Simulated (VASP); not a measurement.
# Convergence of the energy and pressure of scandium metal with the k mesh in PBEsol plane-wave calculations

Scandium is alloyed into aluminium for strength and into aluminium nitride for piezoelectric filters. Formation energies of such materials are counted from the elemental metals, so a sampling error in metallic Sc passes directly into them, and an error in its pressure shifts the relaxed cell. The question is how dense a k mesh the metal requires and what that mesh costs. Energy and pressure were calculated with PBEsol at a fixed cell, without spin polarisation, on meshes from 2×2×1 to 14×14×8. Errors are differences from the 14×14×8 run, which may itself retain a small sampling error; they measure numerical convergence and not agreement with experiment.

## Method

Single-point runs at fixed cell and atoms; within a crystal every other setting is the same. Program: VASP 6.6.1, plane waves and PAW (data sets made for PBE of release 64), scalar-relativistic without spin-orbit coupling, no spin polarisation. Cutoff 400 eV; on the k meshes the divisions times the cell-vector length are 5 Å or more. Occupations: Fermi-Dirac smearing of 0.05 eV. The coarsest mesh (5 Å) is coarse for metals and narrow gaps. Times are rough, from shared x86 server processors.

Notes on method and selection:

- The reference is the densest mesh run, which need not be fully converged.
- Without a gap the mesh has to resolve the Fermi surface, so errors need not fall smoothly.
- The space group named is that of the cell as run, which can be lower than that of the source structure.
- Runs that did not converge, have known faults or may not be shown are not listed, and runs on Ansatz's PAW sets soft_1 and soft_2 are kept to separate tables.

Columns:

- k-mesh length (Å): k-mesh length, the least over the axes of divisions times cell-vector length.
- k points: irreducible k points.
- energy error (meV/atom): energy per atom, extrapolated to zero smearing as the program prints it, minus that of the run on the densest mesh of the same crystal.
- pressure error (GPa): pressure minus that of the run on the densest mesh of the same crystal, compression positive.
- cost (core-s): processor time of the run, shared machines, rough.

Input lines of one member:

```
PREC = Accurate
ENCUT = 400
EDIFF = 1E-06
NELM = 100
ISMEAR = -1
SIGMA = 0.05
LREAL = .FALSE.
ALGO = Normal
GGA = PS
NBANDS = 17
LASPH = .TRUE.
LORBIT = 11
ISIF = 2
```

Command (options for logging and memory left out): `vasp_std`

## Results

| member | k-mesh length (Å) | k points | energy error (meV/atom) | pressure error (GPa) | cost (core-s) | remark |
| --- | --- | --- | --- | --- | --- | --- |
| k 2×2×1 | 5.3 | 2 | −339.29 | −8.000 | 2.5 |  |
| k 3×3×2 | 9.9 | 6 | 80.60 | −0.390 | 3.8 |  |
| k 4×4×2 | 10.5 | 8 | −10.95 | 0.402 | 4.1 |  |
| k 5×5×3 | 15.8 | 10 | ? | ? | 5 |  |
| k 7×7×4 | 21.1 | 24 | −5.12 | −0.143 | 8 |  |
| k 9×9×5 | 26.4 | 36 | −0.05 | 0.028 | 11 |  |
| k 11×11×6 | 31.6 | 64 | −0.10 | −0.010 | 15 |  |
| k 14×14×8 | 42.2 | 120 | 0.00 | 0.000 | 25 | known phase |

Cells marked ? are withheld until the estimate has been made.

energy error (meV/atom) against k-mesh length (Å), members shown:

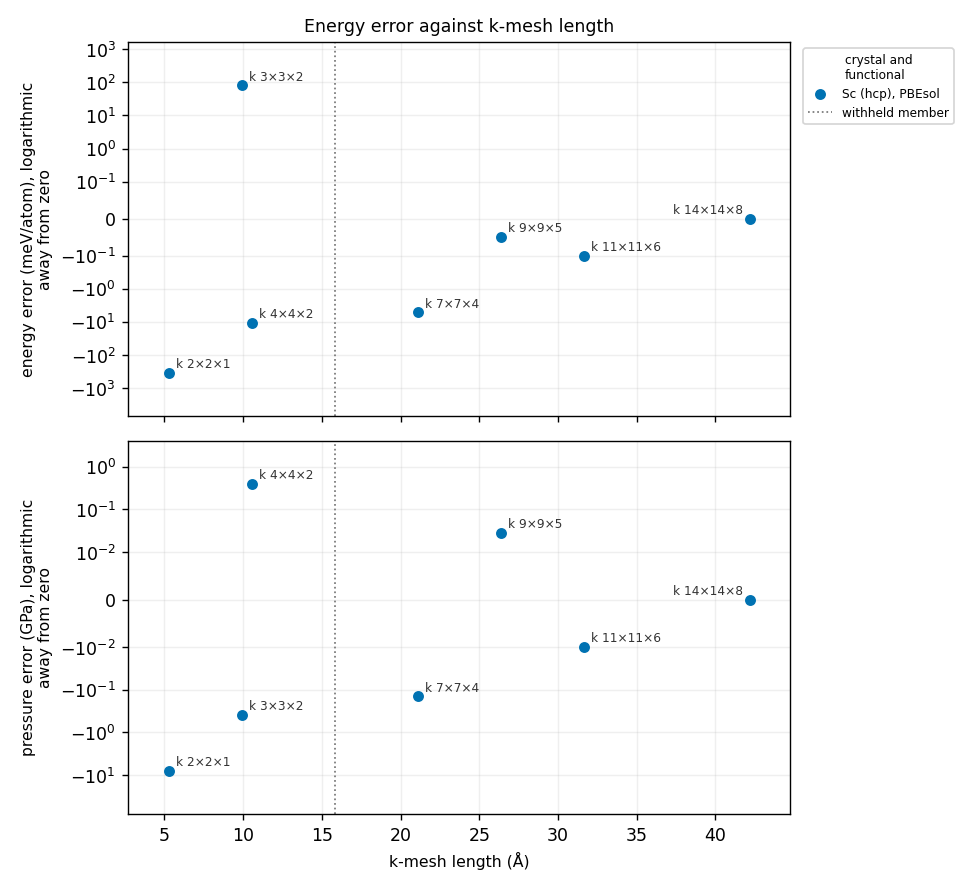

## Mechanism

The energy error shrinks strongly with mesh density, but not smoothly. It is −339.29 meV/atom on 2×2×1, changes sign to 80.60 on 3×3×2, and returns to −10.95 on 4×4×2. The last two meshes have the same two divisions along the long axis, so the swing of 80.60 − (−10.95) = 91.55 meV/atom comes from the in-plane sampling alone. The k-mesh length, which reflects only the least well sampled direction, rises by just 10.5 − 9.9 = 0.6 Å between them.

Such behaviour is expected of a metal with a partly filled d band. Occupations fall from full to empty across the Fermi surface, and a coarse mesh assigns too much or too little weight to the states near it. The sign of the error depends on where the few points happen to lie. A denser mesh averages these contributions, and the smearing of 0.05 eV softens the step that has to be resolved. On the coarsest mesh the Fermi level is also clearly displaced.

Pressure follows a different sequence. Its errors on 3×3×2 and 4×4×2 are −0.390 and 0.402 GPa, almost equal in size, although the energy errors differ in size by a factor of 80.60 / 10.95 = 7.4. A small energy error therefore does not guarantee an equally good pressure. The averaged pressure also partly hides a larger error in the stress along the c axis, which matters when the cell shape is relaxed.

From 9×9×5 onward the energy lies within 0.10 meV/atom of the reference and the pressure within 0.028 GPa. The 9×9×5 run took about 11 core-s, against 25 for the densest mesh. Between the coarsest and densest meshes the cost rises by roughly (25 − 2.5) / (120 − 2) = 0.19 core-s per additional irreducible point. For this small cell, 9×9×5 is a sensible choice for both quantities.

## A prediction

Plain estimates from the members shown:

- k 5×5×3, straight-line interpolation between k 4×4×2 and k 7×7×4: w = (15.8 − 10.5) / (21.1 − 10.5) = 0.500, so −10.95 + 0.500 × (−5.12 − (−10.95)) = −8.04 meV/atom

The straight line between 4×4×2 and 7×7×4 gives −8.04 meV/atom for 5×5×3. It assumes that the error keeps its sign and varies smoothly between neighbouring meshes, which the sign changes among the coarse meshes contradict. The alternative is to assume no sign and take zero as the central value.

Both routes can be tried on the four shown meshes from 3×3×2 to 9×9×5 other than the withheld one, each time interpolating between the nearest shown neighbours. The line misses by 129, 87, 1.4 and 2.5 meV/atom, in order of increasing density; zero misses by 80.6, 10.95, 5.12 and 0.05. Zero is nearer in three of the four cases, the exception being 7×7×4. Four trials are few, and only the two coarsest involve a change of sign, so they give limited support to the expectation that the sign of a Fermi-surface sampling error is not inherited from the next mesh.

The width is taken from the root mean square of the two neighbouring errors: √((10.95² + 5.12²) / 2) = 8.5 meV/atom, rounded up to 9. The same recipe covers the actual error in all four trials, so the bar may be somewhat generous. The central value of zero expresses an undetermined sign, not an expectation that 5×5×3 is converged.

**Committed estimate, k 5×5×3: energy error = 0 ± 9 meV/atom.**

## Result

| member | k-mesh length (Å) | k points | energy error (meV/atom) | pressure error (GPa) | cost (core-s) |
| --- | --- | --- | --- | --- | --- |
| k 5×5×3 | 15.8 | 10 | 22.74 | 0.429 | 5 |

| member | estimate | energy error (meV/atom) | computed | estimate − computed | miss in error bars |
| --- | --- | --- | --- | --- | --- |
| k 5×5×3 | committed | 0.00 | 22.74 | −22.74 | 2.5 |
| k 5×5×3 | interpolation | −8.04 | 22.74 | −30.77 |  |

energy error (meV/atom) against k-mesh length (Å):

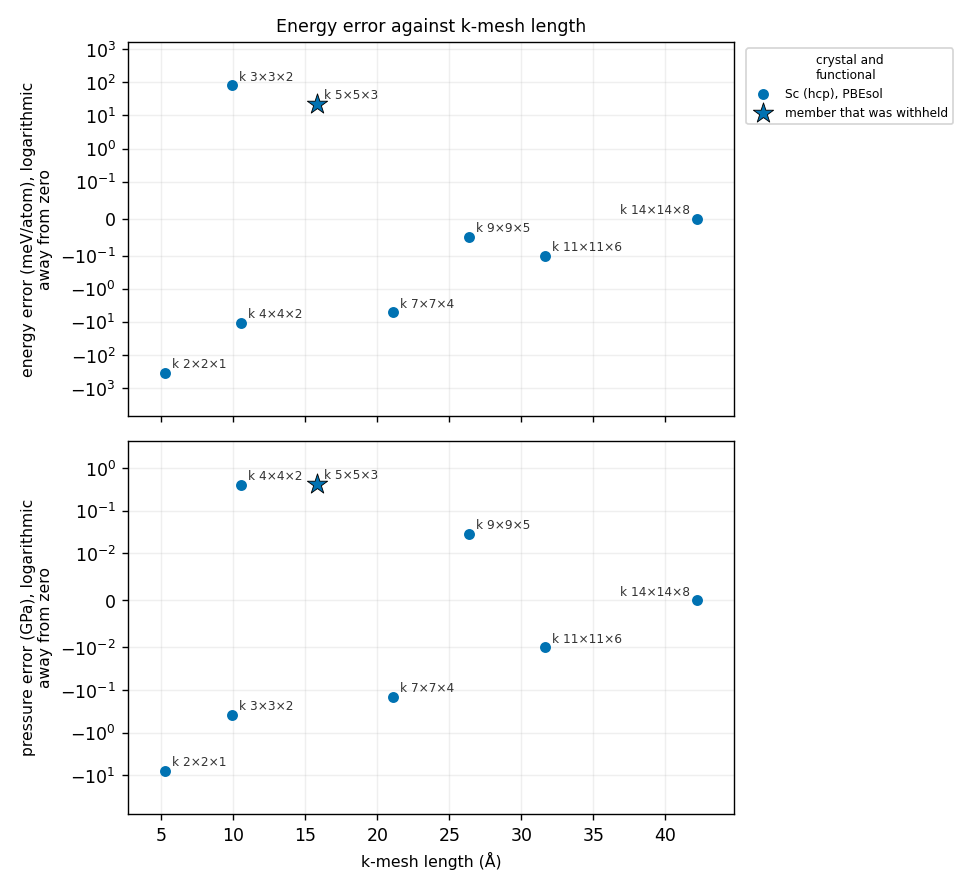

The computed error of 5×5×3 is 22.74 meV/atom, so the estimate of 0 ± 9 missed by 2.5 error bars. Straight-line interpolation did worse, missing by 30.77 meV/atom and giving the wrong sign.

The argument that the sign does not carry over from one mesh to the next held: both neighbours lie below the reference and 5×5×3 lies above it. The error bar failed, and the suggestion that it might be generous was wrong. In all four trials the coarser neighbour had the larger error, which made the recipe look safe. Here the coarser neighbour, 4×4×2, has less than half the error of the mesh to be estimated.

The result fits uneven sampling of the Fermi surface, but the displacement of the Fermi level does not fix the sign of the energy error. The level is too high on both 3×3×2 and 4×4×2, yet the energy is too high on the first and too low on the second.

## Members off the line

The 2×2×1 mesh stands far apart, with errors of −339.29 meV/atom and −8.000 GPa. Its energy error is 339.29 / 80.60 = 4.2 times the next largest in size, and its pressure error 8.000 / 0.429 = 18.6 times. Two irreducible points cannot represent the partly filled bands of a metal, and the Fermi level is displaced strongly downwards.

The 4×4×2 mesh departs in the other direction: its energy error of −10.95 meV/atom is small for so coarse a mesh. Cancellation between regions of the Brillouin zone with too much and too little weight is the likeliest reason. The stress supports this reading, since its component along the c axis is about as far from the reference as on 3×3×2, although the energy error is much smaller. The pressure error of 0.402 GPa is also close to the 0.429 GPa of 5×5×3.

## Time and accuracy

Going from 5×5×3 to 9×9×5 raises the cost from about 5 to 11 core-s and reduces the energy error from 22.74 to −0.05 meV/atom. The pressure error falls from 0.429 to 0.028 GPa. The densest mesh takes about 25 core-s, more than twice the cost of 9×9×5, for a further energy change of only 0.05 meV/atom.

Cost grows more slowly than the number of points: from the coarsest to the densest mesh the points increase by a factor of 120 / 2 = 60 and the time by about 25 / 2.5 = 10. Fixed work therefore weighs heavily in the small runs.

## What to take away

For this hcp cell with 0.05 eV smearing, meshes of 26.4 Å and longer agree with the densest one within 0.10 meV/atom and 0.028 GPa. Below that length, neighbouring meshes do not reliably give the sign or the size of the energy error, so agreement between two coarse meshes is weak evidence of convergence.

In units of practice, the 5×5×3 error amounts to 22.74 × 96 / 1000 = 2.2 kJ per mole of Sc atoms, since 1 eV per atom is about 96 kJ/mol. It would enter a formation energy in full if the compound were converged and the metal were not.

Of the omitted physics, vibration at room temperature would add roughly 80 meV/atom to the energy, about three times kT, and about half a GPa to the pressure at fixed volume if the Grüneisen parameter is near one. The energy term exceeds the whole spread from 4×4×2 onward, 22.74 − (−10.95) = 33.69 meV/atom, but it would hardly alter the differences between meshes.

[Logs are printed without paths, hosts, clocks, repeated set-up lines and the standing remarks that a program may print on its own settings, such as how far it seeks lower states.]
